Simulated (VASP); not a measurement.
# HfC under biaxial (111) strain with PBEsol: normal strain, in-plane stress, strain energy and elastic moduli

A hard carbide coating that grows with (111) planes parallel to its substrate is stretched or compressed equally in two directions, while its free surface leaves the normal direction unloaded. Converting a measured lattice strain into film stress, or into the stored energy that can drive cracking and peeling, requires the elastic response for this orientation. For rocksalt HfC the response is calculated with PBEsol for in-plane strains between −2 % and +2 %. Strains and energies are counted from the relaxed PBEsol crystal, with tension positive, and the lattice is static. The questions are which moduli follow from the small-strain response and at what strain the linear law becomes too coarse.

## Calculations

The start is a typed prototype cell. The crystal was relaxed with PBEsol. Equal strain is imposed in the (111) plane; the strain along the normal is adjusted until the normal stress vanishes, and the atoms are relaxed with PBEsol. VASP 6.6.1, plane waves with PAW, cutoff 600 eV, no spin polarisation, no spin-orbit coupling, k mesh 19×19×19, static lattice. The same in all rows: band gap on the k mesh at PBEsol: 0.000 eV.

Notes on method and selection:

- Runs that did not converge, have known faults or may not be shown are not listed, and runs on Ansatz's PAW sets soft_1 and soft_2 are kept to separate tables.

Columns:

- strain (%): strain in the plane (tension positive).
- normal strain (%): strain along the normal.
- stress (GPa): in-plane stress, tension positive.
- strain energy (meV/atom): energy per atom above the relaxed crystal.

Input lines of one member:

```
PREC = Accurate
ENCUT = 600
EDIFF = 1E-07
NELM = 120
ISMEAR = 1
SIGMA = 0.15
LREAL = .FALSE.
ALGO = Normal
GGA = PS
NBANDS = 14
LASPH = .TRUE.
LORBIT = 11
KPAR = 2
IBRION = 1
NSW = 25
```

Command (options for logging and memory left out): `mpirun -np 2 vasp_std`

## Computed values

| member | strain (%) | normal strain (%) | stress (GPa) | strain energy (meV/atom) |
| --- | --- | --- | --- | --- |
| −2 % | −2.0 | 1.146 | −11.70 | 17.76 |
| −1.5 % | −1.5 | ? | ? | ? |
| −1 % | −1.0 | 0.570 | −5.64 | 4.434 |
| −0.5 % | −0.5 | 0.281 | −2.77 | 1.142 |
| 0 % | 0.0 | −0.003 | 0.01 | 6.55×10⁻⁴ |
| +0.5 % | 0.5 | −0.287 | 2.70 | 0.9537 |
| +1 % | 1.0 | −0.570 | 5.30 | 3.946 |
| +1.5 % | 1.5 | −0.852 | 7.82 | 8.912 |
| +2 % | 2.0 | −1.136 | 10.24 | 15.81 |

Cells marked ? are withheld until the estimate has been made.

normal strain (%) against strain (%), members shown:

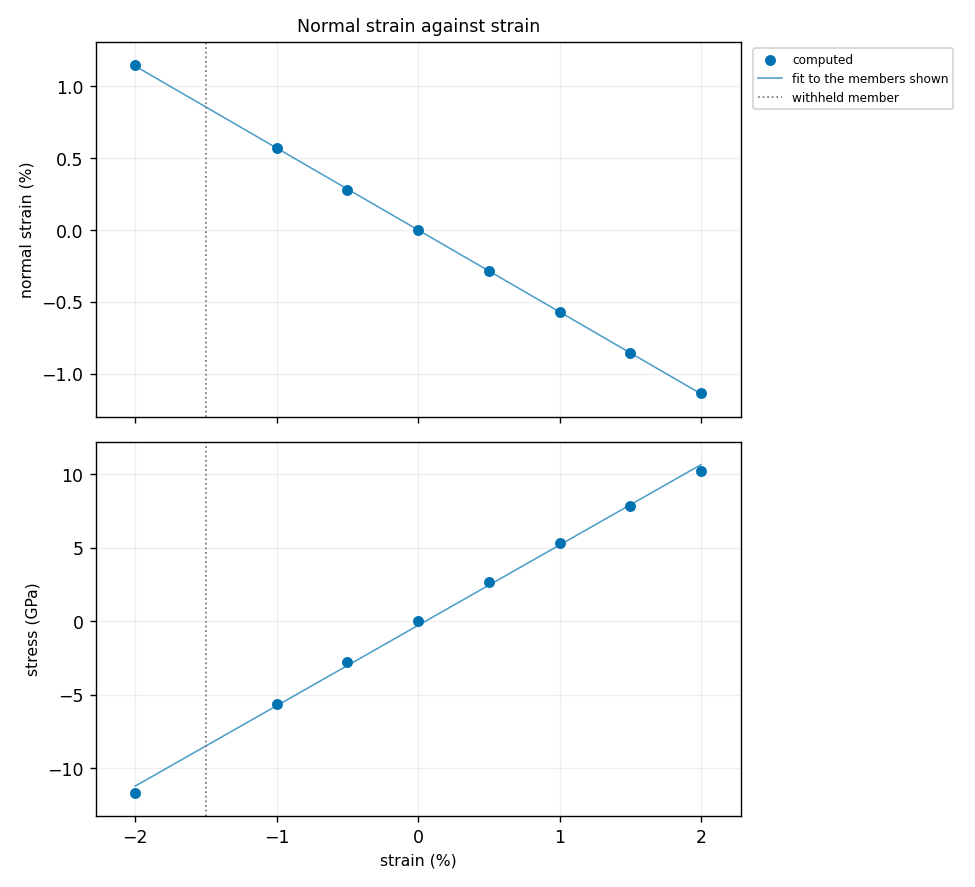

Least-squares fits to the members shown, with x = strain (%); R² and errors in the fitted variable (y, or ln y where the fit is in ln y):

| y | members | fit | R² | rms residual | leave-one-out rms | the same for the mean of the others |
| --- | --- | --- | --- | --- | --- | --- |
| normal strain (%) | 8 | y = 4.887×10⁻⁴ − 0.5699 x | 1.00 | 0.0033 | 0.0053 | 0.81 |
| stress (GPa) | 8 | y = −0.2801 + 5.467 x | 1.00 | 0.28 | 0.47 | 7.8 |

## Interpretation

In-plane tension thins the crystal along the normal, and compression thickens it. Between −1 % and +1 % the normal strain changes by (−0.570 − 0.570) / 2.0 = −0.570 per unit of in-plane strain. The stress rises over the same interval by (5.30 + 5.64) / 2.0 = 5.47 GPa per percent, a biaxial modulus $M$ of 5.47 × 100 = 547 GPa.

With zero normal stress, the volume change is resisted by the bulk modulus $B$ and the change of shape by the shear modulus $C_{44}$. Writing $r = 0.570$ for the thinning ratio,

$$B = \frac{2M}{3(2-r)}, \qquad C_{44} = \frac{M}{2(1+r)}.$$

These give $B$ = 2 × 547 / (3 × (2 − 0.570)) = 255 GPa and $C_{44}$ = 547 / (2 × (1 + 0.570)) = 174 GPa. Only the sum $C_{11}+2C_{12} = 3B$ follows from this loading, not its two parts. Hf and C both stay on inversion centres, so no internal displacement softens the response.

The linear stress law is off by about 3 % at ±1 %. At ±2 % it predicts 2 × 5.47 = 10.94 GPa in magnitude, against 11.70 GPa in compression and 10.24 GPa in tension, errors of 6 to 7 %. The crystal stiffens when compressed because short-range repulsion rises steeply as the bonds shorten. The normal strain stays much closer to a straight line: it depends on the ratio $C_{44}/B$, and inserting the ±2 % rows into the same formulas shows both moduli falling by similar fractions from compression to tension.

The strain energy, summed over the two signs, grows by a factor of (17.76 + 15.81) / (4.434 + 3.946) = 4.01 when the strain doubles from 1 % to 2 %, as a quadratic law requires. Compression costs more than tension, but the excess is relatively largest at ±0.5 %, where anharmonicity should matter least. This suggests an energy minimum slightly on the tensile side of the zero-stress cell, possibly an effect of the finite plane-wave basis on the calculated stress.

## Blind estimate

Plain estimates from the members shown:

- −1.5 %, fit at x = −1.5: 0.855 %
- −1.5 %, straight-line interpolation between −2 % and −1 %: w = (−1.5 − (−2.0)) / (−1.0 − (−2.0)) = 0.500, so 1.146 + 0.500 × (0.570 − 1.146) = 0.858 %

The missing normal strain at −1.5 % lies midway between two shown members, and the straight-line interpolation between them gives 0.858 %. This is preferable to the fit over all members, whose single slope averages over compression and tension and passes below the −2 % row: 0.0005 + 0.5699 × 2.0 = 1.140 %, against 1.146 % in the table.

Curvature could shift the interpolated value. The rows at −2 %, −1 % and 0 % give slopes of −0.576 and −0.573, hence a quadratic coefficient of (−0.573 + 0.576) / 2.0 = 0.0015 per percent. Halfway along a 1 % interval this lowers the value by 0.0015 × 0.5 × 0.5 = 0.0004 %, which is below the printed rounding, so no correction is made. Nothing else argues for a shift, since symmetry excludes an internal displacement and the stress varies smoothly through the neighbouring rows.

The same midpoint rule can be tried on three shown members. At +1.5 % it gives (−0.570 − 1.136) / 2 = −0.853 % against −0.852 %, at +0.5 % (−0.003 − 0.570) / 2 = −0.2865 % against −0.287 %, and at −0.5 % (0.570 − 0.003) / 2 = 0.2835 % against 0.281 %. The root-mean-square miss is 0.0016 %, which is rounded up to 0.002 % for the error bar.

**Committed estimate, −1.5 %: normal strain = 0.858 ± 0.002 %.**

## Result

| member | strain (%) | normal strain (%) | stress (GPa) | strain energy (meV/atom) |
| --- | --- | --- | --- | --- |
| −1.5 % | −1.5 | 0.857 | −8.62 | 9.955 |

| member | estimate | normal strain (%) | computed | estimate − computed | miss in error bars |
| --- | --- | --- | --- | --- | --- |
| −1.5 % | committed | 0.858 | 0.857 | +0.001 | 0.5 |
| −1.5 % | fit | 0.855 | 0.857 | −0.002 |  |
| −1.5 % | interpolation | 0.858 | 0.857 | +0.001 |  |

normal strain (%) against strain (%):

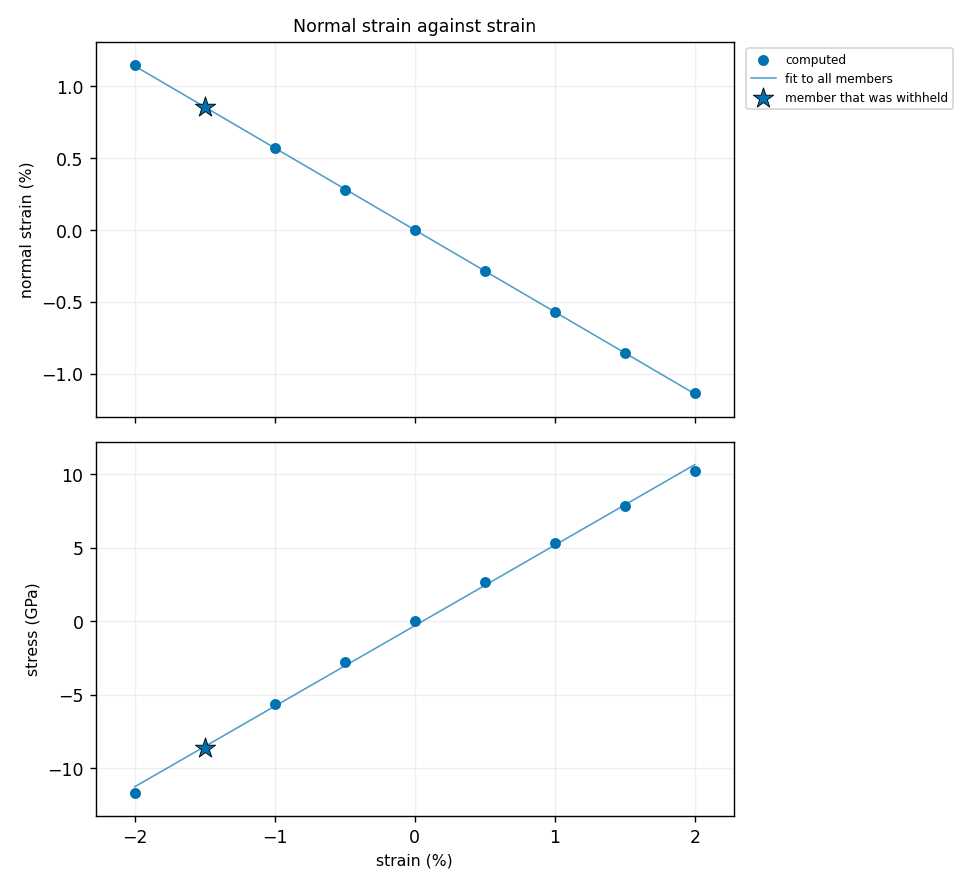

The computed normal strain at −1.5 % is 0.857 %, against an estimate of 0.858 ± 0.002 %. The estimate is inside its error bar and no better than the straight-line interpolation, with which it is identical. The fit over all members misses by 0.002 % on the low side, as expected from a line that also passes below the −2 % row. The neglected curvature correction had the right sign, but it is too small for the printed digits to test.

The new row says more about the stiffness. Its stress of −8.62 GPa gives a secant biaxial modulus of 862 / 1.5 = 575 GPa, and its thinning ratio is 0.857 / 1.5 = 0.571. The earlier formulas then give $B$ = 2 × 575 / (3 × (2 − 0.571)) = 268 GPa and $C_{44}$ = 575 / (2 × (1 + 0.571)) = 183 GPa. Both are about 5 % above the small-strain values of 255 and 174 GPa. Compression therefore stiffens the resistance to volume change and to shear almost equally, which is why the normal strain stays nearly linear while the stress does not.

## Members off the line

Least-squares fits to the whole series, with x = strain (%); R² and errors in the fitted variable (y, or ln y where the fit is in ln y):

| y | members | fit | R² | rms residual | leave-one-out rms | the same for the mean of the others |
| --- | --- | --- | --- | --- | --- | --- |
| normal strain (%) | 9 | y = 6.667×10⁻⁴ − 0.5701 x | 1.00 | 0.0032 | 0.0044 | 0.83 |
| stress (GPa) | 9 | y = −0.2956 + 5.481 x | 1.00 | 0.27 | 0.39 | 8.0 |

Largest departures from the fit to the whole series:

| member | normal strain (%) | fit | computed − fit | in rms residuals |
| --- | --- | --- | --- | --- |
| −2 % | 1.146 | 1.141 | +0.005 | 1.6 |
| −0.5 % | 0.281 | 0.286 | −0.005 | 1.5 |
| 0 % | −0.003 | 0.001 | −0.004 | 1.2 |
| +2 % | −1.136 | −1.140 | +0.004 | 1.1 |

The largest departures from the straight line are only 0.005 %, and most of their pattern is a weak curvature. The −2 % and +2 % rows lie above the line by 0.005 and 0.004 %, while the 0 % row lies below it by 0.004 %. Finite-strain geometry and anharmonic bonding both contribute at this order.

The normal strain of −0.003 % at zero imposed strain has a numerical origin. The reference crystal was left very slightly too large, as its remaining in-plane tension of 0.01 GPa shows. This corresponds to an excess length of 0.01 / 5.47 = 0.0018 % in every direction, and releasing the normal stress then gives −(1 + 0.570) × 0.0018 = −0.003 %. All rows share this offset, so it shifts the line without bending it.

The −0.5 % row, 0.005 % below the line, has a further small error of its own. The adjustment of the normal strain stopped with a slight compressive normal stress still present, so the crystal had not thickened quite far enough.

## Rules of thumb and their limits

Between −2 % and +2 %, the normal strain is −0.570 times the in-plane strain to within about 0.006 %, and a missing member between two neighbours can be interpolated to about 0.002 %. The stress needs a quadratic term, whose coefficient follows from the ±2 % rows as (10.24 − 11.70) / (2 × 4) = −0.18. With $x$ in percent, $\sigma = 5.47x - 0.18x^2$ GPa reproduces the nine rows with a typical miss of 0.02 GPa, against 0.27 GPa for the straight line. The linear term alone is good to about 5 % up to a strain of roughly 1.5 % in either direction.

For a film with a free surface, a (111) spacing reduced by 0.1 % relative to the unstrained crystal corresponds to an in-plane tension of 0.1 × 5.47 / 0.570 = 0.96 GPa.

Two omitted effects can exceed the error of this formula. Thermal motion lowers the stiffness somewhat at room temperature, and carbon vacancies, common in real carbide films, lower it further by removing Hf–C bonds.

[Logs are printed without paths, hosts, clocks, repeated set-up lines and the standing remarks that a program may print on its own settings, such as how far it seeks lower states.]
